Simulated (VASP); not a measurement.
# Valence-band splitting and top-band hole masses of zinc-blende BN under uniaxial [111] stress, r2SCAN with spin-orbit coupling on LDA cells

Uniaxial stress lifts the degeneracy at the valence-band top and so decides which holes carry the current in a p-type layer. We examine how stress along [111] splits the three top valence levels of zinc-blende BN, and how the mass of the top hole band differs between compression and tension. The levels are r2SCAN values with spin-orbit coupling, on cells relaxed with LDA at each imposed axial strain. The second and third levels are given as depths below the valence-band top at Γ of the same cell, so a larger number means a deeper level. Masses are in units of the free-electron mass, along and across the stress axis.

## How the numbers were made

The start is a typed prototype cell. The crystal was relaxed with LDA. Strain is imposed along [111]; the strain across the axis is adjusted until the stress across it vanishes, and the atoms are relaxed with LDA. VASP 6.6.1, plane waves with PAW, cutoff 600 eV, no spin polarisation. Band edges are single points at r2SCAN with spin-orbit coupling on these cells, k mesh 11×11×11, read on short lines of k points at the zone centre and through the valleys; energies are counted from the valence-band top at the zone centre. Each level is the mean of a Kramers pair; masses are fitted within 0.05 1/Å of the zone centre and are rough where two bands nearly touch. All levels use the PAW data sets made with LDA.

Notes on method and selection:

- Runs that did not converge, have known faults or may not be shown are not listed, and runs on Ansatz's PAW sets soft_1 and soft_2 are kept to separate tables.

Columns:

- strain (%): strain along the axis (tension positive).
- second level (eV): second valence level below the top at Γ.
- third level (eV): third valence level below the top at Γ.
- mass, axis (mₑ): mass of the top hole band along the axis.
- mass, across (mₑ): mass of the top hole band across the axis.

Input lines of one member:

```
PREC = Accurate
ENCUT = 600
EDIFF = 1E-06
NELM = 100
ISMEAR = 0
SIGMA = 0.02
LREAL = .FALSE.
ALGO = Normal
METAGGA = R2SCAN
LASPH = .TRUE.
LNONCOLLINEAR = .TRUE.
NBANDS = 18
GGA_COMPAT = .FALSE.
LSORBIT = .TRUE.
KPAR = 3
```

Command (options for logging and memory left out): `mpirun -np 3 vasp_ncl`

## Data

| member | sign of the strain | strain (%) | second level (eV) | third level (eV) | mass, axis (mₑ) | mass, across (mₑ) |
| --- | --- | --- | --- | --- | --- | --- |
| −2 % | compression | −2.0 | 0.1440 | 0.1590 | 0.254 | 1.080 |
| −1.5 % | compression | −1.5 | 0.1040 | 0.1193 | 0.249 | 1.125 |
| −1 % | compression | −1.0 | ? | ? | ? | ? |
| −0.5 % | compression | −0.5 | 0.03170 | 0.0483 | 0.239 | 1.060 |
| 0 % | compression | 0.0 | 1.00×10⁻⁴ | 0.0216 | 1.134 | 1.027 |
| 0 % | tension | 0.0 | 1.00×10⁻⁴ | 0.0216 | 1.134 | 1.027 |
| +0.5 % | tension | 0.5 | 0.01100 | 0.0447 | 1.213 | 0.416 |
| +1 % | tension | 1.0 | 0.01260 | 0.0710 | 1.195 | 0.416 |
| +1.5 % | tension | 1.5 | 0.01320 | 0.1020 | 1.270 | 0.417 |
| +2 % | tension | 2.0 | 0.01340 | 0.1278 | 1.320 | 0.424 |

Cells marked ? are withheld until the estimate has been made.

Least-squares fits to the members shown, with x = strain (%); R² and errors in the fitted variable (y, or ln y where the fit is in ln y):

| y | sign of the strain | members | fit | R² | rms residual | leave-one-out rms | the same for the mean of the others |
| --- | --- | --- | --- | --- | --- | --- | --- |
| third level (eV) | compression | 4 | y = 0.01789 − 0.06916 x | 1.00 | 0.0033 | 0.0076 | 0.073 |
| third level (eV) | tension | 5 | y = 0.01948 + 0.05394 x | 1.00 | 0.0018 | 0.0032 | 0.048 |
| second level (eV) | compression | 4 | y = −0.002070 − 0.07202 x | 1.00 | 0.0021 | 0.0048 | 0.076 |
| second level (eV) | tension | 5 | y = 0.004300 + 0.005760 x | 0.65 | 0.0030 | 0.0061 | 0.0063 (fit hardly better) |

## Reading the trend

Without strain the two upper levels coincide and the third lies 0.0216 eV below them, which is the spin-orbit splitting $\Delta$. Strain of either sign pushes the third level down, faster in compression: (0.1590 − 0.0483) / 1.5 = 0.0738 eV per % between −0.5 and −2 %, against (0.1278 − 0.0447) / 1.5 = 0.0554 eV per % between +0.5 and +2 %.

The second level behaves differently on the two sides. In compression it follows the third, 0.1590 − 0.1440 = 0.0150 eV above it at −2 %. In tension it stays close to the top and levels off at 0.0134 eV. Both small gaps are near $2\Delta/3$ = 2 × 0.0216 / 3 = 0.0144 eV, the spin-orbit splitting left in a pair of p orbitals once strain has moved the third orbital away.

The masses show which orbital is on top. A p orbital pointing along the axis overlaps strongly in that direction and gives a light hole there, but a heavy one across. This is the compressed case, with 0.254 along and 1.080 across at −2 %. In tension the pair of p orbitals lying across the axis is on top, and the masses are 1.320 along and 0.424 across at +2 %. From compression to tension the axial mass therefore rises about fivefold (1.320 / 0.254 = 5.20), while the transverse mass falls by a factor of 1.080 / 0.424 = 2.55. The masses at zero strain belong to touching bands and do not describe a separate top band.

The sign of the orbital splitting results from competing changes in bond angles and bond lengths, whose shares the columns do not give. The extra compressive stress that r2SCAN finds on these cells is nearly isotropic and should shift the three levels together rather than split them.

## Predicting the missing value

Plain estimates from the members shown:

- −1 % (compression), fit at x = −1.0: 0.0871 eV
- −1 % (compression), straight-line interpolation between −1.5 % and −0.5 %: w = (−1.0 − (−1.5)) / (−0.5 − (−1.5)) = 0.500, so 0.1193 + 0.500 × (0.0483 − 0.1193) = 0.0838 eV

The straight-line fit gives 0.0871 eV, but it already lies too high at −0.5 %, because it ignores the flattening of the curve near zero strain. Interpolation between the neighbours, 0.0838 eV, is better but still cuts across part of that curvature.

We use the three-orbital model. With $D$ the size of the strain splitting without spin-orbit coupling, the third level in compression lies at

$$E_3=\sqrt{D^2+\tfrac{2}{3}\Delta D+\Delta^2},\qquad \Delta=0.0216\ \text{eV}.$$

Solved for the splitting, this reads $D=\sqrt{E_3^2-\Delta^2+(\Delta/3)^2}-\Delta/3$, with a third of the spin-orbit splitting equal to 0.0216 / 3 = 0.0072 eV. The two neighbouring rows give

- −0.5 %: √(0.0483² − 0.0216² + 0.0072²) − 0.0072 = 0.0366 eV, or 0.0366 / 0.5 = 0.0732 eV per %
- −1.5 %: √(0.1193² − 0.0216² + 0.0072²) − 0.0072 = 0.11035 eV, or 0.11035 / 1.5 = 0.0736 eV per %

The midpoint, (0.0732 + 0.0736) / 2 = 0.0734 eV per %, gives at −1 %

√(0.0734² + 0.0144 × 0.0734 + 0.0216²) = 0.0831 eV.

As a test, we apply the same route to −1.5 % from the rows at −0.5 and −2 %. The latter gives √(0.1590² − 0.0216² + 0.0072²) − 0.0072 = 0.15049 eV, or 0.15049 / 2 = 0.0752 eV per %. Linear interpolation of the splitting per % then gives 1.5 × (0.0732 + (2 / 3) × (0.0752 − 0.0732)) = 0.1118 eV at −1.5 %, and the third level follows as √(0.1118² + 0.0144 × 0.1118 + 0.0216²) = 0.1207 eV against the tabulated 0.1193 eV, a miss of 0.0014 eV. In tension the model reads $E_3=\tfrac12\left[\Delta+D+\sqrt{D^2-\tfrac{2}{3}\Delta D+\Delta^2}\right]$. Solved for the splitting, this is $D=E_3(E_3-\Delta)/(E_3-\tfrac{2}{3}\Delta)$. The neighbours of +1 % give 0.0447 × (0.0447 − 0.0216) / (0.0447 − 0.0144) = 0.0341 eV and 0.1020 × (0.1020 − 0.0216) / (0.1020 − 0.0144) = 0.0936 eV, so the midpoint per % is (0.0341 / 0.5 + 0.0936 / 1.5) / 2 = 0.0653 eV. The third level at +1 % is then (0.0653 + 0.0216 + √(0.0653² − 0.0144 × 0.0653 + 0.0216²)) / 2 = 0.0742 eV against 0.0710 eV, a miss of 0.0032 eV. The root mean square of the two misses, 0.0025 eV, is our error bar.

**Committed estimate, −1 % (compression): third level = 0.0831 ± 0.0025 eV.**

## The withheld result

| member | sign of the strain | strain (%) | second level (eV) | third level (eV) | mass, axis (mₑ) | mass, across (mₑ) |
| --- | --- | --- | --- | --- | --- | --- |
| −1 % | compression | −1.0 | 0.06840 | 0.0840 | 0.243 | 1.127 |

| member | estimate | third level (eV) | computed | estimate − computed | miss in error bars |
| --- | --- | --- | --- | --- | --- |
| −1 % (compression) | committed | 0.0831 | 0.0840 | −0.0009 | 0.4 |
| −1 % (compression) | fit | 0.0871 | 0.0840 | +0.0030 |  |
| −1 % (compression) | interpolation | 0.0838 | 0.0840 | −0.0002 |  |

third level (eV) against strain (%):

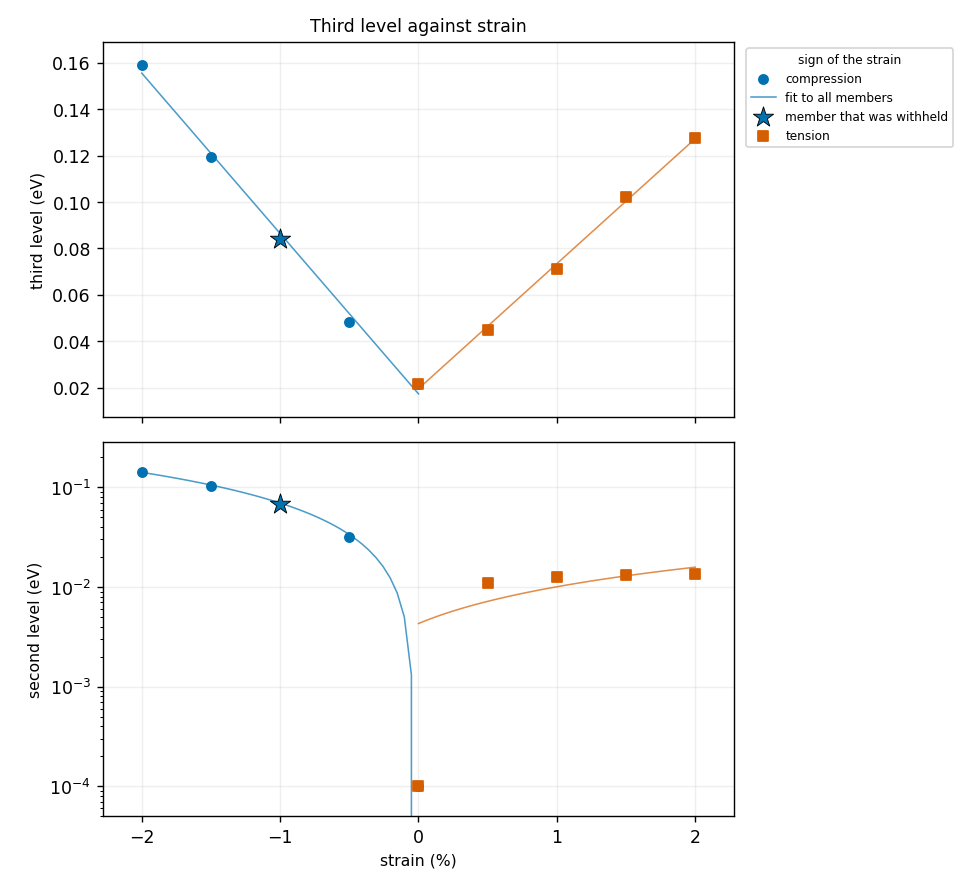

The estimate of 0.0831 eV lies 0.0009 eV below the computed 0.0840 eV, inside its error bar. It is better than the straight-line fit, which is 0.0030 eV too high, but worse than plain interpolation, which misses by only 0.0002 eV.

We were right to expect the fit to come out too high. Our objection to interpolation failed: we expected it to overshoot because the curve bends near zero strain, yet it came out slightly low. The bend is worth only 0.0838 − 0.0831 = 0.0007 eV here, less than the irregularity from row to row.

The second level offers a separate check of the mechanism. In the three-orbital model it lies at $E_2=\tfrac12(D-\Delta+E_3)$ in compression. The computed third level gives a strain splitting of √(0.0840² − 0.0216² + 0.0072²) − 0.0072 = 0.07429 eV, and so a second level at (0.07429 − 0.0216 + 0.0840) / 2 = 0.0683 eV, against 0.0684 eV in the table. The masses, 0.243 along the axis and 1.127 across, also fit a top band built from the orbital along the axis.

## Where the trend breaks

Least-squares fits to the whole series, with x = strain (%); R² and errors in the fitted variable (y, or ln y where the fit is in ln y):

| y | sign of the strain | members | fit | R² | rms residual | leave-one-out rms | the same for the mean of the others |
| --- | --- | --- | --- | --- | --- | --- | --- |
| third level (eV) | compression | 5 | y = 0.01728 − 0.06916 x | 1.00 | 0.0032 | 0.0068 | 0.061 |
| third level (eV) | tension | 5 | y = 0.01948 + 0.05394 x | 1.00 | 0.0018 | 0.0032 | 0.048 |
| second level (eV) | compression | 5 | y = −0.002380 − 0.07202 x | 1.00 | 0.0020 | 0.0042 | 0.064 |
| second level (eV) | tension | 5 | y = 0.004300 + 0.005760 x | 0.65 | 0.0030 | 0.0061 | 0.0063 (fit hardly better) |

Largest departures from the fit to the whole series:

| member | sign of the strain | third level (eV) | fit | computed − fit | in rms residuals |
| --- | --- | --- | --- | --- | --- |
| +1 % | tension | 0.0710 | 0.0734 | −0.0024 | 1.3 |
| 0 % | compression | 0.0216 | 0.0173 | +0.0043 | 1.3 |
| 0 % | tension | 0.0216 | 0.0195 | +0.0021 | 1.2 |
| −0.5 % | compression | 0.0483 | 0.0519 | −0.0036 | 1.1 |

None stands out: the largest departures are 1.3 rms residuals. The two zero-strain entries, which are one and the same calculation, lie above their lines (+0.0043 and +0.0021 eV) and −0.5 % lies below (−0.0036 eV), as expected when a straight line is drawn through a curve that starts with a gentler slope because spin-orbit coupling already splits the levels. The same bend accounts for the sign at +1 % (−0.0024 eV), though small remainders of the atomic relaxation may add to it.

## Rules of thumb and their limits

Between −2 and +2 %, compression gives a top hole band that is light along [111] and heavy across it, and tension reverses this. Within one sign of strain, interpolating the third level between the rows 0.5 % below and above misses by at most (0.0840 + 0.0216) / 2 − 0.0483 = 0.0045 eV, at −0.5 %, next to the bend. Interpolation across zero strain fails, because the level deepens on both sides.

For devices the second level matters most. With a thermal energy of roughly 0.026 eV at room temperature, a state at the second level holds about exp(−0.0684 / 0.026) = 0.07 times as many holes as one at the top at −1 %, but exp(−0.0134 / 0.026) = 0.6 times at +2 %. Compression of 1 % or more therefore leaves mainly one band in use near Γ, whereas under tension both upper bands carry holes and the top-band mass alone does not describe transport.

Of the omitted physics, lattice vibrations should shift the three upper valence levels largely together, so the splittings should change much less than the levels themselves.

[Logs are printed without paths, hosts, clocks, repeated set-up lines and the standing remarks that a program may print on its own settings, such as how far it seeks lower states.]
